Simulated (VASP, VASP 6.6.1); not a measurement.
# Lattice constant of bcc molybdenum: r2SCAN within 0.5 % of a powder diffraction value

## Experiment

The reference is the lattice constant of the molybdenum phase in a powder mixture of Mo with 21 wt% Tm2O3, determined by powder X-ray diffraction before any milling ("Microstructural Evolution, Thermodynamics, and Kinetics of Mo-Tm2O3 Powder Mixtures during Ball Milling", 2016, PubMed Central 5456621). The value is 3.1474 Å for the conventional cubic cell. The measurement temperature is not given with the value; we take it to be close to room temperature. The presence of an oxide might raise a doubt about purity, but the powders had only been mixed at this point, so we regard the metal as effectively pure Mo. The cell from a separate structure refinement, from which our calculations start, has practically the same lattice constant.

| compared with | measured | source's wording or label | method |
| --- | --- | --- | --- |
| lattice constant a of the conventional cell (Å) | 3.1474 | 0.31474 nm (a of Mo phase before milling (0 h)) | powder X-ray diffraction |

Conditions are those given with the value in the passage it was taken from; "not stated" means there, and the paper may say more elsewhere. The values are a selection: others may have been left out beforehand as unlike or outlying.

## Plan

We want the least expensive level of theory that gives the lattice constant within 0.5 %, or about 0.016 Å, of the measured value. Common density functionals typically spread over one to two per cent in the lattice constants of transition metals, so this target can separate a suitable functional from an unsuitable one. It also leaves room for what the model omits: our nuclei are static, whereas the sample has zero-point motion and thermal expansion. For a stiff, high-melting metal we estimate that these lengthen the cell by roughly 0.1 to 0.2 %.

The model is the perfect, nonmagnetic bcc crystal with one atom in the primitive cell. Each relaxation starts from the refined cell stretched by 3 % in volume, with the symmetry kept. We begin with the local density approximation, move to gradient-corrected functionals if it misses, and then check the numerical settings of the level on which the verdict is to rest.

System: Mo; Im-3m (No. 229), 1 atom in the cell; conventional a = 3.147 A, from a published structure refinement (COD).

On the selection of runs and values: 1 further cited values are not listed: repeats, values quoted from earlier work, more than five for one quantity or six quantities, or quantities that fewer than three runs give.

## 1. The local density approximation first

LDA is the simplest functional and a natural lower rung for a close-packed or nearly close-packed metal. It usually binds too strongly, so we expect a cell about one per cent too short. A dense k mesh is used from the start because molybdenum is a metal with a structured Fermi surface.

**Run 1.** VASP 6.6.1: LDA; 450 eV, 20x20x20 k mesh; cell and atoms relaxed, relaxed twice, LASPH on.

Key lines of the input:
```
ALGO = Normal
EDIFF = 1E-06
EDIFFG = -0.006
ENCUT = 450
GGA = CA
IBRION = 2
ISIF = 3
ISMEAR = 1
LASPH = .TRUE.
NBANDS = 13
NELM = 100
NSW = 50
PREC = Accurate
SIGMA = 0.15
KPOINTS: Gamma, 20 20 20
PAW data sets: Mo_sv (LDA 64)
```

Command:
```
mpirun -np 8 vasp_std
```

Selected lines of the output:
```
 reached required accuracy - stopping structural energy minimisation
  external PRESSURE =       0.1039192 kB  Pullay stress =       0.0000000 kB
```

Converged; 33 s on 8 cores of Intel Xeon Platinum 8488C (Sapphire Rapids), shared host.

| quantity | run 1 | measured | deviation |
| --- | --- | --- | --- |
| lattice constant a of the conventional cell (Å) | 3.1157 | 3.1474 | −0.0317 (−1.0 %) |
| volume of the conventional cell (Å³) | 30.24 |  |  |
| space group at the end | Im-3m |  |  |
| pressure left at the end (GPa) | 0.0104 |  |  |

LDA gives a lattice constant of 3.1157 Å, 1.0 % below the measured value and twice the allowed deviation. The sign and size are those of its usual overbinding. The relaxation converged with very little pressure left, so the miss does not come from an unfinished optimisation.

## 2. Two gradient-corrected functionals

The next step up is a gradient correction, which adds little to the work for a one-atom cell. We run PBE and PBEsol at the same cutoff and k mesh as LDA. PBE weakens the binding more strongly and often makes the cells of heavier metals somewhat too large; PBEsol was designed for the equilibrium structures of solids and should fall between LDA and PBE. We expect both to improve on LDA, with PBEsol the more likely to meet the target.

**Run 2.** VASP 6.6.1: PBE; 450 eV, 20x20x20 k mesh; cell and atoms relaxed, LASPH on.

Key lines of the input, as changed from run 1:
```diff
- GGA = CA
+ GGA = PE
- PAW data sets: Mo_sv (LDA 64)
+ PAW data sets: Mo_sv (PBE 64)
```

Selected lines of the output:
```
 reached required accuracy - stopping structural energy minimisation
  volume of cell :       15.82
```

Converged; took 14 s.

**Run 3.** VASP 6.6.1: PBEsol; 450 eV, 20x20x20 k mesh; cell and atoms relaxed, relaxed twice, LASPH on.

Key lines of the input, as changed from run 2:
```diff
- GGA = PE
+ GGA = PS
```

Selected lines of the output:
```
 reached required accuracy - stopping structural energy minimisation
  volume of cell :       15.36
```

Converged; took 40 s.

| quantity | run 2 | run 3 | measured |
| --- | --- | --- | --- |
| lattice constant a of the conventional cell (Å) | 3.1628 | 3.1316 | 3.1474 |
| volume of the conventional cell (Å³) | 31.64 | 30.71 |  |
| space group at the end | Im-3m | Im-3m |  |
| pressure left at the end (GPa) | −0.0560 | 0.0374 |  |

The two functionals fall on opposite sides of the measurement by almost the same amount. PBE is 0.0154 Å too long, just under 0.5 % and a narrow pass, and PBEsol is 0.0158 Å too short, just over 0.5 % and a narrow miss. The margins are too thin to rank the two. Both improve clearly on LDA, and PBEsol lies between LDA and PBE as we had expected, though nearer to LDA than its purpose had led us to hope.

## 3. Cutoff and k mesh for PBEsol

With PBEsol so close to the limit, even a small numerical error could change the call. We therefore raise the plane-wave cutoff to 600 eV in one run and refine the k mesh to 28×28×28 in another, leaving everything else alone. We choose PBEsol for these checks because the missing zero-point and thermal expansion would bring its cell towards the measured one, while it would take PBE further away. We expect both changes to be small compared with the 0.5 % target.

**Run 4.** VASP 6.6.1: PBEsol; 600 eV, 20x20x20 k mesh; cell and atoms relaxed, relaxed twice, LASPH on.

Key lines of the input, as changed from run 3:
```diff
- ENCUT = 450
+ ENCUT = 600
```

Selected lines of the output:
```
  external PRESSURE =      -0.1297282 kB  Pullay stress =       0.0000000 kB
  volume of cell :       15.36
```

Converged; took 33 s.

**Run 5.** VASP 6.6.1: PBEsol; 450 eV, 28x28x28 k mesh; cell and atoms relaxed, relaxed twice, LASPH on.

Key lines of the input, as changed from run 3:
```diff
- KPOINTS: Gamma, 20 20 20
+ KPOINTS: Gamma, 28 28 28
```

Selected lines of the output:
```
  external PRESSURE =       0.3608293 kB  Pullay stress =       0.0000000 kB
  volume of cell :       15.35
```

Converged; took 68 s.

| quantity | run 4 | run 5 | measured |
| --- | --- | --- | --- |
| lattice constant a of the conventional cell (Å) | 3.1318 | 3.1315 | 3.1474 |
| volume of the conventional cell (Å³) | 30.72 | 30.71 |  |
| space group at the end | Im-3m | Im-3m |  |
| pressure left at the end (GPa) | −0.0130 | 0.0361 |  |

Neither change matters physically. The higher cutoff lengthens the cell by 0.0002 Å, which the different pressures left by the relaxations can account for, and the denser mesh shortens it by only 0.0001 Å. Such differences are nevertheless enough to move PBEsol across the limit: the 600 eV run is a narrow pass, the 28×28×28 run a narrow miss. PBEsol therefore sits on the edge of the target, and its deviation of about 0.5 % does not come from the cutoff or mesh; we ascribe it to the functional and, in part, to the expansion that the static model omits.

## 4. A dispersion correction on PBE

We look for a level with a clearer margin at little extra cost. PBE gives too large a cell, and the attraction added by D3(BJ) should shorten it. The pairwise picture behind this correction is less well founded in a metal, where conduction electrons screen the interaction, so a good lattice constant would be useful in practice without proving that dispersion is what PBE lacks. We expect a contraction of some tenths of a per cent.

**Run 6.** VASP 6.6.1: PBE + D3(BJ); 450 eV, 20x20x20 k mesh; cell and atoms relaxed, relaxed twice, LASPH on.

Key lines of the input, as changed from run 2:
```diff
+ IVDW = 12
```

Selected lines of the output:
```
 reached required accuracy - stopping structural energy minimisation
  volume of cell :       15.37
```

Converged; took 33 s.

| quantity | run 6 | measured | deviation |
| --- | --- | --- | --- |
| lattice constant a of the conventional cell (Å) | 3.1325 | 3.1474 | −0.0149 (−0.5 %) |
| volume of the conventional cell (Å³) | 30.74 |  |  |
| space group at the end | Im-3m |  |  |
| pressure left at the end (GPa) | 0.0381 |  |  |

D3(BJ) shortens the PBE cell by 0.0303 Å, about 1.0 %, which is more than we expected. It carries the lattice constant from 0.0154 Å above the measured value to 0.0149 Å below it. This is again a narrow pass, as calculated no closer to the measured value than plain PBE in any useful sense, though now on the short side, where the omitted expansion would help. The correction has the right sign but overshoots: it is about twice the gap between PBE and the measured value.

## 5. A meta-GGA without added dispersion

Since the pairwise correction overshoots, we turn to a better description of the electrons themselves. r2SCAN also uses the kinetic-energy density, which helps it to distinguish metallic from covalent bonding, and both have a part in a transition metal with a half-filled d shell. It should cost somewhat more per step than a gradient-corrected functional, which is easily affordable for one atom. We expect a lattice constant between those of PBEsol and PBE, and hope for a deviation well inside the target.

**Run 7.** VASP 6.6.1: r2SCAN; 450 eV, 20x20x20 k mesh; cell and atoms relaxed, relaxed twice, LASPH on.

Key lines of the input, as changed from run 2:
```diff
- GGA = PE
+ METAGGA = R2SCAN
```

Selected lines of the output:
```
 reached required accuracy - stopping structural energy minimisation
  external PRESSURE =       0.2565138 kB  Pullay stress =       0.0000000 kB
  volume of cell :       15.69
```

Converged; took 1.8 min.

| quantity | run 7 | measured | deviation |
| --- | --- | --- | --- |
| lattice constant a of the conventional cell (Å) | 3.1543 | 3.1474 | +0.0069 (+0.2 %) |
| volume of the conventional cell (Å³) | 31.39 |  |  |
| space group at the end | Im-3m |  |  |
| pressure left at the end (GPa) | 0.0256 |  |  |

r2SCAN gives 3.1543 Å, 0.0069 Å above the measured value and less than half the allowed deviation. This is the first pass with a comfortable margin, and the result lies between PBEsol and PBE as we had expected. The run took 1.8 min, so the dearer functional is no obstacle for a crystal this small.

## 6. Does r2SCAN need a dispersion term?

Adding D3(BJ) to PBE moved the lattice constant by twice the allowed deviation, so we want to know whether the r2SCAN result is equally sensitive to long-range correlation. We add the nonlocal rVV10 term and keep the cutoff and mesh. r2SCAN already contains part of the medium-range attraction, and we expect a contraction clearly smaller than that from D3(BJ). This tests the physics of the level rather than its numerical convergence; a cutoff and mesh test with r2SCAN itself is not shown in this report.

**Run 8.** VASP 6.6.1: r2SCAN + rVV10; 450 eV, 20x20x20 k mesh; cell and atoms relaxed, relaxed twice, LASPH on.

Key lines of the input, as changed from run 7:
```diff
+ BPARAM = 11.95
+ CPARAM = 0.0093
+ IVDW_NL = 2
+ LUSE_VDW = .TRUE.
```

Selected lines of the output:
```
 reached required accuracy - stopping structural energy minimisation
  external PRESSURE =       0.3026159 kB  Pullay stress =       0.0000000 kB
  volume of cell :       15.60
```

Converged; took 2.5 min.

| quantity | run 8 | measured | deviation |
| --- | --- | --- | --- |
| lattice constant a of the conventional cell (Å) | 3.1484 | 3.1474 | +0.0010 (+0.0 %) |
| volume of the conventional cell (Å³) | 31.21 |  |  |
| space group at the end | Im-3m |  |  |
| pressure left at the end (GPa) | 0.0303 |  |  |

The rVV10 term shortens the r2SCAN cell by roughly 0.006 Å, about a fifth of the contraction that D3(BJ) produced with PBE. The lattice constant of 3.1484 Å is only 0.0010 Å above the measured value, but r2SCAN already met the target without the extra term. The pass therefore does not depend on whether nonlocal correlation is included, and for this target the addition is not needed.

We end the work here. Plain r2SCAN has a clear margin at a modest cost, and a still closer match to a single lattice constant would not be a sound reason for choosing a more elaborate level.

## Summary of runs

| run | settings | lattice constant a of the conventional cell (Å) | deviation | cost |
| --- | --- | --- | --- | --- |
| 1 | LDA, 450 eV, 20x20x20 k mesh, relaxed twice | 3.1157 | −0.0317 (−1.0 %) | 4.5 core-min |
| 2 | PBE, 450 eV, 20x20x20 k mesh | 3.1628 | +0.0154 (+0.5 %) | 1.9 core-min |
| 3 | PBEsol, 450 eV, 20x20x20 k mesh, relaxed twice | 3.1316 | −0.0158 (−0.5 %) | 5.3 core-min |
| 4 | PBEsol, 600 eV, 20x20x20 k mesh, relaxed twice | 3.1318 | −0.0156 (−0.5 %) | 4.3 core-min |
| 5 | PBEsol, 450 eV, 28x28x28 k mesh, relaxed twice | 3.1315 | −0.0160 (−0.5 %) | 9.1 core-min |
| 6 | PBE + D3(BJ), 450 eV, 20x20x20 k mesh, relaxed twice | 3.1325 | −0.0149 (−0.5 %) | 4.4 core-min |
| 7 | r2SCAN, 450 eV, 20x20x20 k mesh, relaxed twice | 3.1543 | +0.0069 (+0.2 %) | 14 core-min |
| 8 | r2SCAN + rVV10, 450 eV, 20x20x20 k mesh, relaxed twice | 3.1484 | +0.0010 (+0.0 %) | 20 core-min |
|  | measured | 3.1474 |  |  |

The runs in order, against the measurement:

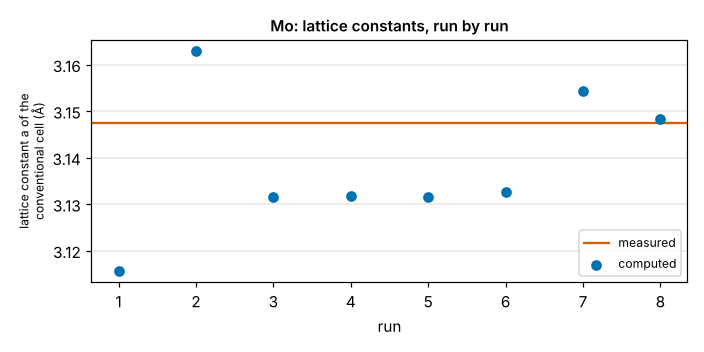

Further runs on the same system, made beside this series (convergence steps with loose settings among them):

| further | settings | lattice constant a of the conventional cell (Å) | deviation | cost |
| --- | --- | --- | --- | --- |
| F1 | vdW-DF-cx, 450 eV, 20x20x20 k mesh, relaxed twice | 3.1361 | −0.0113 (−0.4 %) | 11 core-min |
| F2 | optB86b-vdW, 450 eV, 20x20x20 k mesh, relaxed twice | 3.1469 | −0.0005 (−0.0 %) | 12 core-min |
| F3 | PBEsol + D3(BJ), 450 eV, 20x20x20 k mesh, relaxed twice | 3.1038 | −0.0436 (−1.4 %) | 4.5 core-min |
| F4 | PBEsol + D4, 450 eV, 20x20x20 k mesh, relaxed twice | 3.1189 | −0.0285 (−0.9 %) | 5.4 core-min |
| F5 | AM05, 450 eV, 20x20x20 k mesh, relaxed twice | 3.1266 | −0.0208 (−0.7 %) | 5.1 core-min |
| F6 | RPBE, 450 eV, 20x20x20 k mesh | 3.1765 | +0.0291 (+0.9 %) | 1.7 core-min |
| F7 | BLYP, 450 eV, 20x20x20 k mesh, relaxed twice | 3.2051 | +0.0577 (+1.8 %) | 6.5 core-min |
| F8 | PBEsol, 240 eV, 20x20x20 k mesh, relaxed twice | 3.0988 | −0.0486 (−1.5 %) | 2.6 core-min |
| F9 | PBEsol, 450 eV, 11x11x11 k mesh, relaxed twice | 3.1315 | −0.0159 (−0.5 %) | 1.7 core-min |
|  | measured | 3.1474 |  |  |

## Verdict

r2SCAN meets the 0.5 % target: its lattice constant of 3.1543 Å is 0.0069 Å, or 0.2 %, above the measured value, at a cost of 14 core-minutes. Zero-point motion and thermal expansion, which we put at roughly 0.1 to 0.2 %, would lengthen the cell and raise the deviation to about 0.3 to 0.4 %, still a pass.

The same allowance would push PBE, a narrow pass as calculated, beyond the limit. It would bring PBEsol, which sits on the limit, inside it, about as far below the measured value as r2SCAN would then be above. The answer to our question about the least expensive level therefore depends on the allowance: as calculated it is PBE, narrowly; with the allowance it is PBEsol; r2SCAN passes either way, and that is our reason for resting the verdict on it. A gradient-corrected functional costs less per step than a meta-GGA, though the run times are too rough to put a figure on the saving.

LDA misses the target with or without the allowance. For PBEsol, the tests showed that its deviation does not come from the cutoff or the mesh; an 11×11×11 mesh would have served equally well, whereas a 240 eV cutoff shortens the cell by about 1 %. D3(BJ) overcorrects PBE to about the PBEsol value, so with the allowance it would do about as well as PBEsol and offers nothing beyond it; added to PBEsol, it takes the cell to 1.4 % below experiment. The rVV10 term was not needed for the target, and its almost exact agreement would loosen slightly once expansion is included. optB86b-vdW comes equally close at a cost similar to that of r2SCAN, so the success is not peculiar to one functional.

What remains for r2SCAN is a cell slightly too large, which we attribute mainly to the functional. Some numerical points stay open. Convergence with cutoff and mesh was shown for PBEsol, not for r2SCAN. The r2SCAN run, like those with PBEsol, used PAW data sets made for PBE; their effect on the lattice constant, and that of the smearing width, is not shown in this report. The temperature of the measurement is not given with the value either, so the expansion remains an estimate.

[Logs are printed without paths, hosts, clocks, repeated set-up lines and the standing remarks that a program may print on its own settings, such as how far it seeks lower states.]

[The runs shown are a pick from a larger set of finished runs; failed, doubtful and other runs were left out of it ahead of writing. So were measured values far from every level or from commonly accepted values, and agreement can look better than it is. Lines of input and output are excerpts and may be shortened.]
